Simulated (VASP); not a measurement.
# Wall time of one SCF run on the CaMgCr4 model (F-43m) with different electronic solvers and mixing settings, LDA in VASP

CaMgCr4 combines two electropositive metals, which give up their s electrons readily, with four chromium atoms whose partly filled 3d shells should dominate the states near the Fermi level. Such a metal tests the SCF cycle, because charge can move between many close-lying states and a starting magnetic moment may grow or vanish on the way. In searches through many intermetallic compounds, for magnets or hydrogen storage for instance, the time per run decides how many candidates can be treated. The wall time of one SCF run on the six-atom model cell is examined here for several solvers and density-mixing settings. It is given in seconds on two MPI ranks, and the reference is the run with ALGO = Normal.

## How the numbers were made

A model structure made by substituting elements in a known one; it need not exist. VASP 6.6.1, plane waves with PAW, LDA, 6 atoms at fixed positions, collinear spin, no spin-orbit coupling. Held fixed: cutoff 400 eV, k mesh 6×6×6, ISMEAR = -1, SIGMA = 0.05 eV and 2 MPI ranks. Left out, because the run did not converge or stopped: ALGO = Damped. Each row is named by the tags or value that set it apart; differences are taken from the run 'ALGO = Normal'. All ran on Intel(R) Xeon(R) Platinum 8488C (Sapphire Rapids), shared with other work, so times are rough. The same in all rows: energy per atom extrapolated to zero smearing, less that of the reference (ALGO = Normal): 0.000 meV/atom.

Notes on method and selection:

- Runs that did not converge, have known faults or may not be shown are not listed, and runs on Ansatz's PAW sets soft_1 and soft_2 are kept to separate tables.

Columns:

- cycles: SCF cycles.

Input lines of one member:

```
PREC = Accurate
ENCUT = 400
EDIFF = 1E-06
NELM = 100
ISMEAR = -1
SIGMA = 0.05
LREAL = .FALSE.
ALGO = Normal
GGA = CA
NBANDS = 40
ISPIN = 2
LMAXMIX = 4
LORBIT = 11
KPAR = 2
ISIF = 2
```

Command (options for logging and memory left out): `mpirun -np 2 vasp_std`

## Computed values

| member | cycles | wall time (s) |
| --- | --- | --- |
| AMIX = 0.8 | 21 | 83 |
| ALGO = Normal | 17 | 77 |
| AMIX = 0.1, BMIX = 0.01 | 19 | 90 |
| ALGO = VeryFast | 32 | 181 |
| ALGO = All | 30 | ? |
| IMIX = 1, AMIX = 0.2 | 41 | ? |
| ALGO = Fast | 21 | 112 |

Cells marked ? are withheld until the estimate has been made.

## What drives the series

Among the runs with a wall time shown, ALGO = Normal is the shortest at 77 s and ALGO = VeryFast the longest at 181 s, a ratio of 181 / 77 = 2.35. Most of this comes from the number of cycles, which rises by 32 / 17 = 1.88. The remaining factor, 2.35 / 1.88 = 1.25 in time per cycle, is too small to interpret on a shared machine.

The cycle counts have a plausible origin in the solvers. Normal uses the blocked Davidson method, which improves the orbitals within a common subspace and is robust from a crude start. VeryFast uses RMM-DIIS, which reduces the residual of each band separately and relies on good starting orbitals, for which VASP by default takes more initial steps at fixed density; these count as cycles too. Fast begins with Davidson steps and then changes to RMM-DIIS; its 21 cycles lie between the 17 of Normal and the 32 of VeryFast, as this explanation requires. The saving in orthogonalisation for which RMM-DIIS is valued matters in large cells, and has little to act on with six atoms and 40 bands.

Changing the mixing parameters alone has a small effect: 19 cycles with AMIX = 0.1 and BMIX = 0.01, and 21 with AMIX = 0.8. The default mixer builds each new density from the history of earlier ones and so largely corrects a poor initial step length. IMIX = 1, which is Kerker mixing, has no such history. In the simplest picture each component of its density error shrinks by a factor 1 − AMIX·λ per cycle, where λ contains the dielectric response and the Kerker damping of long-wavelength changes. A small AMIX or a strong damping then means slow convergence. The 41 cycles of that run fit this picture. The loss of the initial ferromagnetic moment during the cycles may add to the count.

The energies agree to the printed 0.000 meV/atom, so the longer runs bring no gain in accuracy. ALGO = Damped did not finish properly and is left out, so the rows show the cost of successful settings, not the risk of failure.

## An estimate before looking

Plain estimates from the members shown:

- IMIX = 1, AMIX = 0.2, mean of the 5 members shown: 109 s, standard deviation 38
- ALGO = All, mean of the 5 members shown: 109 s, standard deviation 38

The mean of 109 s ignores the known cycle counts. Wall time is therefore estimated as cycles times seconds per cycle. As a trial, VeryFast is predicted from the mean Davidson rate of (83 / 21 + 77 / 17 + 90 / 19) / 3 = 4.41 s and the Fast rate of 112 / 21 = 5.33 s: 32 × (4.41 + 5.33) / 2 = 156 s, against 181 s in the table. The mean of the other four runs, (83 + 77 + 90 + 112) / 4 = 90.5 s, misses by far more.

The run with IMIX = 1 keeps the Davidson solver, and a simpler mixer hardly changes the work per cycle. The three Davidson runs shown give 83 / 21 = 3.95, 77 / 17 = 4.53 and 90 / 19 = 4.74 s, with a mean of 4.41 s and a standard deviation of 0.41 s. The estimate is 41 × 4.41 = 181 s. Including the uncertainty of a mean of three, the error is 41 × 0.41 × √(4/3) = 19 s.

ALGO = All updates all bands together by conjugate gradients, a solver with no timed row. One rate per solver is used: 4.41 s for Davidson, 5.33 s for Fast and 181 / 32 = 5.66 s for VeryFast. Their mean is (4.41 + 5.33 + 5.66) / 3 = 5.13 s and their standard deviation 0.65 s, which gives 30 × 5.13 = 154 s with an error of 30 × 0.65 × √(4/3) = 23 s. Trial and corrector steps could raise the cost per cycle, but no row supplies a factor for them.

**Committed estimate, IMIX = 1, AMIX = 0.2: wall time = 180 ± 20 s.**  
**Committed estimate, ALGO = All: wall time = 154 ± 23 s.**

## Outcome

| member | cycles | wall time (s) |
| --- | --- | --- |
| ALGO = All | 30 | 129 |
| IMIX = 1, AMIX = 0.2 | 41 | 205 |

| member | estimate | wall time (s) | computed | estimate − computed | miss in error bars |
| --- | --- | --- | --- | --- | --- |
| IMIX = 1, AMIX = 0.2 | committed | 180 | 205 | −25 | 1.2 |
| IMIX = 1, AMIX = 0.2 | mean | 109 | 205 | −96 |  |
| ALGO = All | committed | 154 | 129 | +25 | 1.1 |
| ALGO = All | mean | 109 | 129 | −20 |  |

wall time (s) by member:

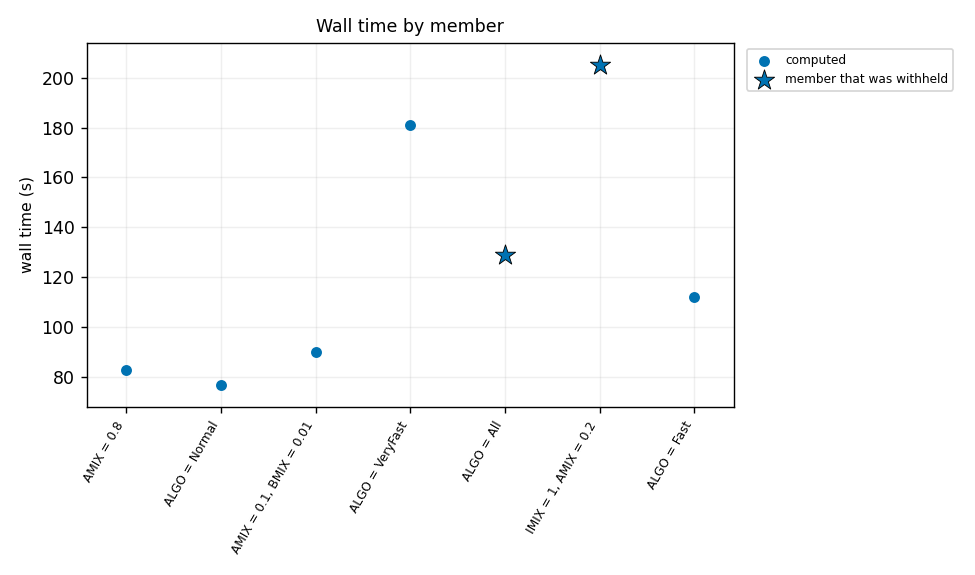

Both estimates fell just outside their error bars. For IMIX = 1 the estimate of 180 s was 25 s too low, far closer than the plain mean, which was 96 s too low. For ALGO = All the estimate of 154 s was 25 s too high, and the plain mean did slightly better, with a miss of 20 s.

Scaling with the cycle count held roughly for IMIX = 1: its 205 / 41 = 5.00 s per cycle is somewhat above the 4.41 s assumed, and above each of the other Davidson runs. A miss of 1.2 error bars is not unusual when the bar is one standard deviation, and three runs on a shared machine fix that scatter only poorly. For ALGO = All, the average over solvers was too high. The run took 129 / 30 = 4.30 s per cycle instead of 5.13 s, so the possible extra cost of trial and corrector steps does not appear in its time.

The slow run with IMIX = 1 is thus mainly a matter of many cycles, not of costly ones. It also kept the largest remnant of the starting moment, though a tiny one, which fits a slow decay of the magnetisation under mixing without history.

## Departures from the trend

Measured against cycles times the mean time per cycle of the other six runs, ALGO = VeryFast lies farthest off. The mean of the others is (3.95 + 4.53 + 4.74 + 5.33 + 4.30 + 5.00) / 6 = 4.64 s, so the rule gives 32 × 4.64 = 148 s, and the run took 181 s, 33 s more. RMM-DIIS is usually expected to need less work per cycle than Davidson, which would shift the time the other way. A fixed start-up time also has the wrong sign, since it would weigh most on short runs. Yet Fast, the other run with RMM-DIIS steps, has the next highest time per cycle, so a real cost of this solver in a small cell cannot be told apart from other load on the shared machine.

AMIX = 0.8 departs in the opposite direction: the others average (4.53 + 4.74 + 5.66 + 5.33 + 4.30 + 5.00) / 6 = 4.93 s per cycle, so 21 × 4.93 = 103 s is expected and 83 s was needed, 20 s less. Its solver is that of ALGO = Normal, and mixing the density takes little of the work in a cycle, so a quieter machine is the likeliest reason.

IMIX = 1 has the longest wall time but is no exception to this rule, which gives 41 × (3.95 + 4.53 + 4.74 + 5.66 + 5.33 + 4.30) / 6 = 195 s against 205 s.

## What to take away

For this six-atom cell, between 17 and 41 cycles, wall time follows the cycle count at about 4.8 s per cycle. Predicting each run from the rate of the other six misses by 14 s on average, against 46 s for the mean time of the others. The rule needs the cycle count, which is known only once a run has converged or a similar one has been done.

ALGO = Normal with default mixing needs the fewest cycles here. Choosing it over IMIX = 1 with AMIX = 0.2 saves 205 − 77 = 128 s per run, or 1000 × 128 / 3600 = 36 hours over a thousand runs of this kind, with the same energy. One model compound cannot establish that order for other metals.

The slowest run takes 2.7 times as long as the fastest. Changes to the physical model, such as exact exchange in a hybrid functional or spin-orbit coupling with non-collinear spins, also raise the cost, but no row here measures by how much.

[Logs are printed without paths, hosts, clocks, repeated set-up lines and the standing remarks that a program may print on its own settings, such as how far it seeks lower states.]
